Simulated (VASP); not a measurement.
# Work functions of thirteen unrelaxed elemental metal faces against electronegativity and top-layer density, with LDA, PBE and r2SCAN in VASP

I calculate the work function $\Phi$ of thirteen elemental metal faces, each cut from the bulk and left unrelaxed. $\Phi$ is the energy of the vacuum level outside the slab less the Fermi level, so a larger value means that an electron is harder to remove. It governs electron emission and the alignment of levels at contacts. My question is how far it follows the electronegativity $\chi$ of the element and the packing $\sigma$ of the top layer, and how far the functionals lie from experiment. Every element appears with one face only, and the functional changes from row to row, so the face effect is never seen at fixed element. Four members have a measured value beside them.

## Computational details

VASP 6.6.1 with its PAW datasets (LDA 64 and PBE 64), cutoffs of 300 eV, meshes of 10 to 21 points along the first in-plane vector, Fermi-Dirac smearing of 0.1 eV, dipole correction, no spin-orbit coupling; spin-polarised where noted. Symmetric 1×1 slabs at the tabulated measured lattice constant, atoms at bulk places, 18 Å of vacuum; functional as listed. Aspherical gradient terms inside the PAW spheres (LASPH) are on, except where a row says so.

Notes on method and selection:

- Slabs of this thickness leave size errors that can reach a tenth of an eV.
- LDA places work functions tenths of an eV above gradient-corrected functionals.
- The descriptor on the axis is one of a few that could serve, and the choice was not fixed ahead of the values.
- Runs in which the search for lower states was switched off are not listed.
- Where rows or columns differ in functional or spin-orbit coupling, non-spherical gradient terms in the PAW spheres (LASPH) may be on in some and off in others.
- Runs that did not converge, have known faults or may not be shown are not listed, and runs on Ansatz's PAW sets soft_1 and soft_2 are kept to separate tables.
- A language model judged 2 of the measured values at hand unlike the computed quantity or outlying; they, and members whose columns rest on them, are left out, so mean errors are over the rest.

Columns:

- electronegativity: Pauling electronegativity of the element (tabulated).
- top-layer density (nm⁻²): atoms per nm² in the top layer.
- layers: number of layers.
- functional: functional and dispersion term.
- Φ (eV): work function: vacuum level outside the slab less the Fermi level.

## Results

| member | electronegativity | top-layer density (nm⁻²) | layers | functional | Φ (eV) | remark |
| --- | --- | --- | --- | --- | --- | --- |
| Na(100), LDA | 0.93 | 5.6 | 7 | LDA | 2.78 |  |
| Li(100), r2SCAN | 0.98 | 8.2 | 7 | r2SCAN | 3.03 |  |
| Ca(100), LDA | 1.00 | 6.4 | 7 | LDA | 2.91 | LASPH off |
| Hf(0001), PBE | 1.30 | 11.3 | 7 | PBE | 4.37 | LASPH off |
| Be(0001), LDA | 1.57 | 22.0 | 7 | LDA | 5.51 | LASPH off |
| Nb(100), r2SCAN | 1.60 | 9.2 | 7 | r2SCAN | 3.71 |  |
| V(100), LDA | 1.63 | 11.0 | 7 | LDA | 4.08 | spin-polarised; LASPH off |
| Ni(111), r2SCAN | 1.91 | 18.6 | 7 | r2SCAN | 4.83 | spin-polarised |
| Mo(100), LDA | 2.16 | 10.1 | 7 | LDA | 4.29 | LASPH off |
| Ir(111), LDA | 2.20 | 15.7 | 7 | LDA | 5.86 |  |
| Pt(110), LDA | 2.28 | 9.2 | 7 | LDA | 5.62 | LASPH off |
| Pb(111), PBE | 2.33 | 9.4 | 6 | PBE | 3.76 | LASPH off |
| Au(110), PBE | 2.54 | 8.5 | 6 | PBE | 4.96 | LASPH off |

Φ (eV) against electronegativity:

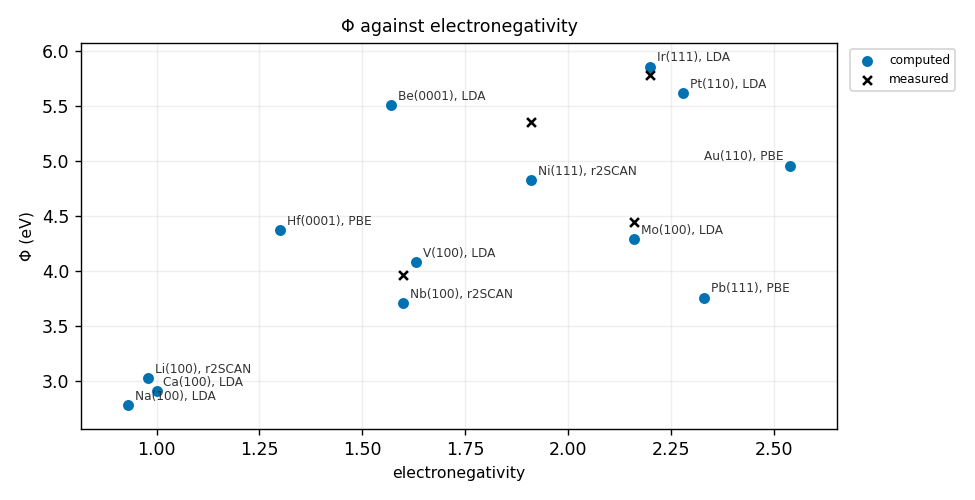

## Interpretation

Na, Ca and Li have the lowest work functions, 2.78 to 3.03 eV, and every other member lies at 3.71 eV or above. These three have the lowest electronegativities and also the thinnest top layers, so either quantity would sort them. Above them electronegativity orders the faces badly: Be at 1.57 has 5.51 eV, while Pb at 2.33 has 3.76 eV.

Be and V show why packing deserves a place in the model. Both are LDA rows with LASPH off, the V slab has no moments, and their electronegativities differ by only 0.06. The Be layer is twice as dense and its work function is higher by 5.51 − 4.08 = 1.43 eV. One is an sp metal and the other a d metal, so packing need not be the whole cause.

The simplest model I can derive has two parts, $\Phi = B + S$.

First, $B$ is the part that the atoms bring with them. Mulliken's electronegativity is the mean of ionisation energy and electron affinity. For a large piece of metal both of these become the work function, and so does their mean. Pauling's scale runs roughly in proportion to Mulliken's. I therefore assume $B = b\chi$, with one $b$ for all metals and no constant term.

Second, $S$ comes from electrons that spill out beyond the top layer. They leave a sheet of dipoles with its negative side outward, which an escaping electron must cross. If each top-layer atom carries the same dipole $p$, electrostatics gives $S = e p \sigma/\varepsilon_0 = c\sigma$.

Together these give

$$\Phi = b\chi + c\sigma .$$

Both parameters should be positive. An open face has a smaller $\sigma$ and hence a lower $\Phi$, which is the accepted direction: on open faces electrons also flow into the hollows between atoms and weaken the outward dipole.

## The model against the table

I fix the model on Be(0001) and Mo(100), which share functional, LASPH setting and number of layers and differ strongly in packing. The two conditions are 1.57 $b$ + 22.0 $c$ = 5.51 and 2.16 $b$ + 10.1 $c$ = 4.29. They give

$b$ = (4.29 × 22.0 − 5.51 × 10.1) / (2.16 × 22.0 − 1.57 × 10.1) = 1.22 eV per Pauling unit,

$c$ = (5.51 × 2.16 − 4.29 × 1.57) / (2.16 × 22.0 − 1.57 × 10.1) = 0.163 eV nm².

This $c$ corresponds to one electron per surface atom shifted outward by roughly 0.009 nm, which is a believable size.

Four other members follow, with departures taken as table less model.

- V(100), LDA: 1.22 × 1.63 + 0.163 × 11.0 = 3.78 eV; the table has 4.08, a departure of +0.30 eV.
- Ir(111), LDA: 1.22 × 2.20 + 0.163 × 15.7 = 5.24 eV; the table has 5.86, a departure of +0.62 eV.
- Pt(110), LDA: 1.22 × 2.28 + 0.163 × 9.2 = 4.28 eV; the table has 5.62, a departure of 5.62 − 4.28 = 1.34 eV.
- Ni(111), r2SCAN: 1.22 × 1.91 + 0.163 × 18.6 = 5.36 eV; the table has 4.83, a departure of −0.53 eV.

Over all eleven members not used as anchors the mean absolute miss is about 0.63 eV, against a mean absolute scatter of about 0.87 eV about their own average. That gain is fragile. With Pt in place of Mo as the second anchor, $b$ rises to about 2.0 and the miss becomes about 0.70 eV against a scatter of about 0.74 eV, which is no real improvement. I keep the model as an account of directions and would not use it to estimate a new face.

## Where the trend breaks

Nine of the eleven departures are positive. A missing constant term in $B$ would act this way, but so would an anchor, Mo, that lies low for its electronegativity. Na, Ca and Li, at about +0.73, about +0.65 and about +0.50 eV, speak for the constant, since they stay above the model when Pt replaces Mo as anchor.

Pt is the worst case, at roughly +1.3 eV. It has the same top-layer density as Nb, so the model separates the two by electronegativity alone, 1.22 × (2.28 − 1.60) = 0.83 eV, where the table has 1.91 eV. The change from r2SCAN to LDA accounts for some tenths of that gap; the rest speaks against a single $b$, against the same dipole $p$ for every surface atom, or against both; these two rows cannot tell which. Hf, at about +0.94 eV, is a PBE row set against LDA anchors, so the functional would push it the other way.

Pb and Ni fall below the model, by about 0.61 and about 0.53 eV. For both, the functional has the right sign. For Pb the descriptor is also doubtful: the tabulated electronegativity belongs to four-valent lead, and the two-valent value is lower.

## Checking against experiment

| member | quantity | measured | computed | computed − measured | conditions | source |
| --- | --- | --- | --- | --- | --- | --- |
| Nb(100), r2SCAN | Φ (eV) | 3.97 | 3.71 | −0.26 | compiled values differ between sources by a tenth of an eV or more; compiled experimental value; Nb(100) single-crystal face | [1] |
| Ni(111), r2SCAN | Φ (eV) | 5.36 | 4.83 | −0.53 | compiled values differ between sources by a tenth of an eV or more; compiled experimental value; Ni(111) single-crystal face | [1] |
| Mo(100), LDA | Φ (eV) | 4.45 | 4.29 | −0.16 | compiled values differ between sources by a tenth of an eV or more; this face reconstructs in experiment and the slab does not | [1] |
| Ir(111), LDA | Φ (eV) | 5.78 | 5.86 | +0.08 | compiled values differ between sources by a tenth of an eV or more; compiled experimental value; Ir(111) single-crystal face | [1] |

Computed − measured (first source of each member):

- Φ (eV): mean error −0.22, mean absolute error 0.26 over 4 members

Sources:

[1] "Anisotropic work function of elemental crystals" (2019, arXiv:1902.07811)

The four compared members keep their measured order, Nb, Mo, Ni, Ir, although the mean absolute error is 0.26 eV. The two LDA rows lie closest, with Ir at +0.08 and Mo at −0.16 eV. The two r2SCAN rows are lower than measured, Nb by 0.26 and Ni by 0.53 eV. This fits the known tendency of LDA to give higher work functions than gradient-corrected functionals, but the elements differ too, so two rows each do not rank the functionals. PBE is not compared here.

The Ir error is within what slab thickness and the disagreement between compilations can produce. For Mo the measured face reconstructs and the slab does not, so its small error is weak evidence of accuracy.

Ni has the largest error. A thickness error of a tenth of an eV and a similar uncertainty in the compiled value would cover less than half of it. The slab is ferromagnetic, and r2SCAN is known to exaggerate the magnetism of such metals; that may contribute, though I cannot give the sign of its effect on $\Phi$. Two measured values judged unsuitable were left out, so the mean error describes a selected set.

## Conclusions and limits

What holds from Na to Au is coarse: the three members that are lowest in both electronegativity and packing have the lowest work functions. Among the other ten, neither quantity alone gives the order. Electronegativity was one of several possible descriptors and was not chosen before the values were known, which weakens even the coarse statement.

The full spread is 5.86 − 2.78 = 3.08 eV, and the model misses Pt by well over 1 eV, so it leaves out real differences between the metals. Going from LDA to a gradient-corrected functional lowers $\Phi$ by tenths of an eV, and the slab thickness can shift it by up to a tenth either way. Both are too small to explain the miss for Pt, but they matter when two rows with similar work functions are compared.

[On method and selection: Error sizes named in these notes are rules of thumb and were not measured on these runs.]
